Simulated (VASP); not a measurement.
# Convergence of energy and pressure with the k mesh for metallic MgAu, local-density approximation in VASP

The energy and pressure of the intermetallic compound MgAu are calculated on a series of k meshes, from 2×2×2 to 13×13×13, at fixed cell and fixed atomic positions. The two atoms of the cell are displaced from their symmetric sites, so forces remain on them at every mesh. The functional is the local-density approximation (`GGA = CA`), used with PAW data sets made for PBE. Each error is the value on a given mesh minus that on the 13×13×13 mesh, so it measures sampling alone and not the distance from experiment. The question is how dense a mesh is needed and what it costs. It matters for alloys because competing phases often differ by only some tens of meV per atom or less, and because an error in pressure becomes an error in the relaxed volume.

## Computational details

Single-point runs at fixed cell and atoms; within a crystal every other setting is the same. Program: VASP 6.6.1, plane waves and PAW (data sets made for PBE of release 64), scalar-relativistic without spin-orbit coupling, no spin polarisation. Cutoff 400 eV; on the k meshes the divisions times the cell-vector length are 6 Å or more. Occupations: Fermi-Dirac smearing of 0.05 eV. The coarsest mesh (6 Å) is coarse for metals and narrow gaps. Times are rough, from shared x86 server processors.

Notes on method and selection:

- The reference is the densest mesh run, which need not be fully converged.
- Without a gap the mesh has to resolve the Fermi surface, so errors need not fall smoothly.
- The space group named is that of the cell as run, which can be lower than that of the source structure.
- Runs that did not converge, have known faults or may not be shown are not listed, and runs on Ansatz's PAW sets soft_1 and soft_2 are kept to separate tables.

Columns:

- k-mesh length (Å): k-mesh length, the least over the axes of divisions times cell-vector length.
- k points: irreducible k points.
- energy error (meV/atom): energy per atom, extrapolated to zero smearing as the program prints it, minus that of the run on the densest mesh of the same crystal.
- pressure error (GPa): pressure minus that of the run on the densest mesh of the same crystal, compression positive.
- force error (meV/Å): largest difference of the force on an atom against the run on the densest mesh of the same crystal.
- cost (core-s): processor time of the run, shared machines, rough.

Input lines of one member:

```
PREC = Accurate
ENCUT = 400
EDIFF = 1E-06
NELM = 100
ISMEAR = -1
SIGMA = 0.05
LREAL = .FALSE.
ALGO = Normal
GGA = CA
NBANDS = 12
LASPH = .TRUE.
LORBIT = 11
ISIF = 2
```

Command (options for logging and memory left out): `vasp_std`

## The series

| member | k-mesh length (Å) | k points | energy error (meV/atom) | pressure error (GPa) | force error (meV/Å) | cost (core-s) | remark |
| --- | --- | --- | --- | --- | --- | --- | --- |
| k 2×2×2 | 6.5 | 8 | 562.17 | 2.507 | 58.84 | 2.7 |  |
| k 3×3×3 | 9.8 | 14 | 160.02 | −0.577 | 17.78 | 3.4 |  |
| k 4×4×4 | 13.0 | 36 | −47.30 | 1.494 | 51.51 | 6.5 |  |
| k 5×5×5 | 16.3 | 63 | 5.38 | 0.658 | 0.29 | 9.1 |  |
| k 6×6×6 | 19.6 | 112 | 17.51 | 0.429 | 3.17 | 14 |  |
| k 8×8×8 | 26.1 | 260 | 3.96 | 0.401 | 4.24 | 30 |  |
| k 10×10×10 | 32.6 | 504 | ? | ? | ? | 56 |  |
| k 13×13×13 | 42.4 | 1099 | 0.00 | 0.000 | 0.00 | 120 | entry of the Crystallography Open Database |

Cells marked ? are withheld until the estimate has been made.

## Reading the trend

The energy error shrinks strongly but not smoothly. It is 562.17 meV/atom on the 2×2×2 mesh, changes sign at 4×4×4 (−47.30), is small at 5×5×5 (5.38), rises again at 6×6×6 (17.51) and is 3.96 at 8×8×8. The small value at 5×5×5 is therefore best read as a partial cancellation, not as convergence.

The reason is the Fermi surface. Neighbouring k points lie $\Delta k = 2\pi/L$ apart, where $L$ is the k-mesh length. For 8×8×8 this gives 2 × 3.1416 / 26.1 = 0.241 Å⁻¹. With a band slope of roughly 5 eV Å, typical of broad metallic bands, the energy changes by about 1 eV from one point to the next, far more than the smearing of 0.05 eV. Whether a point falls just inside or just outside the Fermi surface then changes the band-energy sum, with either sign.

Pressure follows a different course. From 6×6×6 to 8×8×8 the energy error falls by a factor 17.51 / 3.96 = 4.4, while the pressure error only goes from 0.429 to 0.401 GPa. A remaining sampling error in the reference run could contribute to this common positive offset. For a bulk modulus of roughly 100 GPa, 0.4 GPa corresponds to about 0.4 % in volume.

The k-point counts are those left when only $\mathbf{k}$ and $-\mathbf{k}$ are paired, for example (8 × 8 × 8 + 8) / 2 = 260, so on the denser meshes the cost grows nearly as the cube of the divisions. Between 8×8×8 and 13×13×13 each further k point costs (120 − 30) / (1099 − 260) = 0.107 core-s. Even the densest run takes only about two core-minutes, which leaves little reason to economise on the mesh for a cell this small.

## An estimate before looking

Plain estimates from the members shown:

- k 10×10×10, straight-line interpolation between k 8×8×8 and k 13×13×13: w = (32.6 − 26.1) / (42.4 − 26.1) = 0.399, so 3.96 + 0.399 × (0.00 − 3.96) = 2.38 meV/atom

Straight-line interpolation gives 2.38 meV/atom for 10×10×10, but it assumes a slow, one-sided decay. Tried on 8×8×8 from its neighbours 6×6×6 and 13×13×13, it gives 17.51 × (42.4 − 26.1) / (42.4 − 19.6) = 12.5 meV/atom, against 3.96 in the table.

A better route scales the error with the reciprocal-space volume per mesh point, $\Delta E = c/N^3$, where $N$ is the number of divisions along each axis. The products $c = N^3\,\Delta E$ for $N$ = 2, 3, 4, 5, 6 and 8 are 8 × 562.17 / 1000 = 4.50, 27 × 160.02 / 1000 = 4.32, 64 × (−47.30) / 1000 = −3.03, 5 × 5 × 5 × 5.38 / 1000 = 0.67, 6 × 6 × 6 × 17.51 / 1000 = 3.78 and 512 × 3.96 / 1000 = 2.03 eV/atom. Their size shows no steep trend, although the errors themselves span two orders of magnitude.

The two coarsest meshes are set aside as too crude for a metal. The mean of the other four is (−3.03 + 0.67 + 3.78 + 2.03) / 4 = 0.86 eV/atom, with a standard deviation of 2.9 eV/atom. Division by 10 × 10 × 10 = 1000 gives 0.9 ± 2.9 meV/atom. Keeping all six would raise the centre to 2.0, well within the error bar.

Tried on 8×8×8 with only $N$ = 4, 5 and 6, the route gives (−3.03 + 0.67 + 3.78) / 3 / 512 = 0.0009 eV/atom, or 0.9 meV/atom, a miss of 3.0. The sign for 10×10×10 thus remains open.

**Committed estimate, k 10×10×10: energy error = 0.9 ± 2.9 meV/atom.**

## Outcome

| member | k-mesh length (Å) | k points | energy error (meV/atom) | pressure error (GPa) | force error (meV/Å) | cost (core-s) |
| --- | --- | --- | --- | --- | --- | --- |
| k 10×10×10 | 32.6 | 504 | −7.15 | −0.037 | 0.81 | 56 |

| member | estimate | energy error (meV/atom) | computed | estimate − computed | miss in error bars |
| --- | --- | --- | --- | --- | --- |
| k 10×10×10 | committed | 0.90 | −7.15 | +8.05 | 2.8 |
| k 10×10×10 | interpolation | 2.38 | −7.15 | +9.53 |  |

energy error (meV/atom) against k-mesh length (Å):

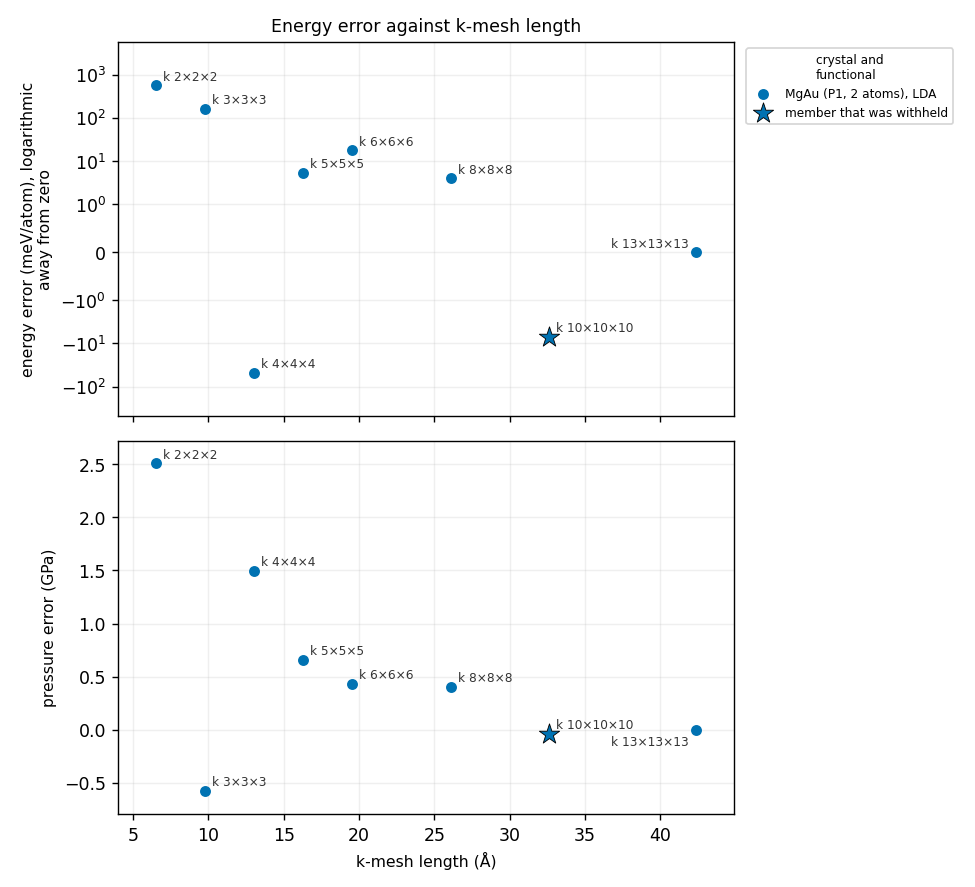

The estimate of 0.9 ± 2.9 meV/atom failed: the computed error is −7.15 meV/atom, 2.8 error bars away. Straight-line interpolation missed by slightly more, 9.53 against 8.05 meV/atom, and both gave the wrong sign.

The argument that the sign was open is borne out, but the assumed decay with $1/N^3$ is not. The product $N^3\,\Delta E$ for the new mesh is 1000 × (−7.15) / 1000 = −7.15 eV/atom, larger in size than for any coarser mesh, so the error bar drawn from that scaling was too narrow. The change of sign fits a Fermi surface sampled with little smearing.

The pressure error of only −0.037 GPa also speaks against the earlier suggestion that the offset of about 0.4 GPa on the 6×6×6 and 8×8×8 meshes came from the reference run. That offset belongs mainly to those two meshes.

## Members off the line

Two meshes depart from a steady decay. The 4×4×4 mesh has an energy error of −47.30 meV/atom between positive errors on both sides, and its force error of 51.51 meV/Å is almost as large as that of 2×2×2. Its Fermi level nevertheless lies very close to that of the densest mesh, so a good Fermi level is no sign of a converged energy. A plausible reason is that so sparse a mesh happens to give too much weight to occupied states of low energy, but the total energies alone do not prove this.

The 10×10×10 mesh is the second case. Its energy error is larger in size than the 3.96 meV/atom of 8×8×8, although its pressure and force errors are smaller. Energy and pressure weight the sampled states differently, so one can be nearly right while the other is not. An error left in the reference energy may add to the −7.15 meV/atom.

The 5×5×5 mesh looks better than it is. Its force error is only 0.29 meV/Å and its energy error 5.38 meV/atom, but the pressure is still off by 0.658 GPa and the Fermi level is clearly too low, which points to cancellation.

## What the accuracy costs

Going from 8×8×8 to 10×10×10 adds 56 − 30 = 26 core-s. It lowers the pressure error from 0.401 GPa to 0.037 GPa in size, but brings no gain in energy. The densest mesh takes 120 core-s, still a small sum for a single run.

The cost follows the number of k points, which is high here because the displaced atoms leave no symmetry beyond the pairing of $\mathbf{k}$ with $-\mathbf{k}$. A cell with full cubic symmetry would need far fewer points for the same mesh.

## Conclusions and limits

From 8×8×8 on, the energy lies within about 7 meV/atom of the densest run, but the sign and size of the error on a further mesh cannot be estimated usefully from its neighbours. The energies on 8×8×8 and 10×10×10 differ by 3.96 + 7.15 = 11.11 meV/atom, or about 1.1 kJ per mole of atoms. Phases that lie closer together than this call for denser meshes, with convergence checked on the energy difference itself. A broader smearing of Methfessel-Paxton type, or the tetrahedron method, usually speeds convergence in metals.

For the pressure, 10×10×10 agrees with the densest run to 0.037 GPa. Thermal expansion, which is left out, acts as an outward pressure of roughly 1 GPa at room temperature. That exceeds every pressure error from 5×5×5 on, though not those of the 2×2×2 and 4×4×4 meshes.

[Logs are printed without paths, hosts, clocks, repeated set-up lines and the standing remarks that a program may print on its own settings, such as how far it seeks lower states.]
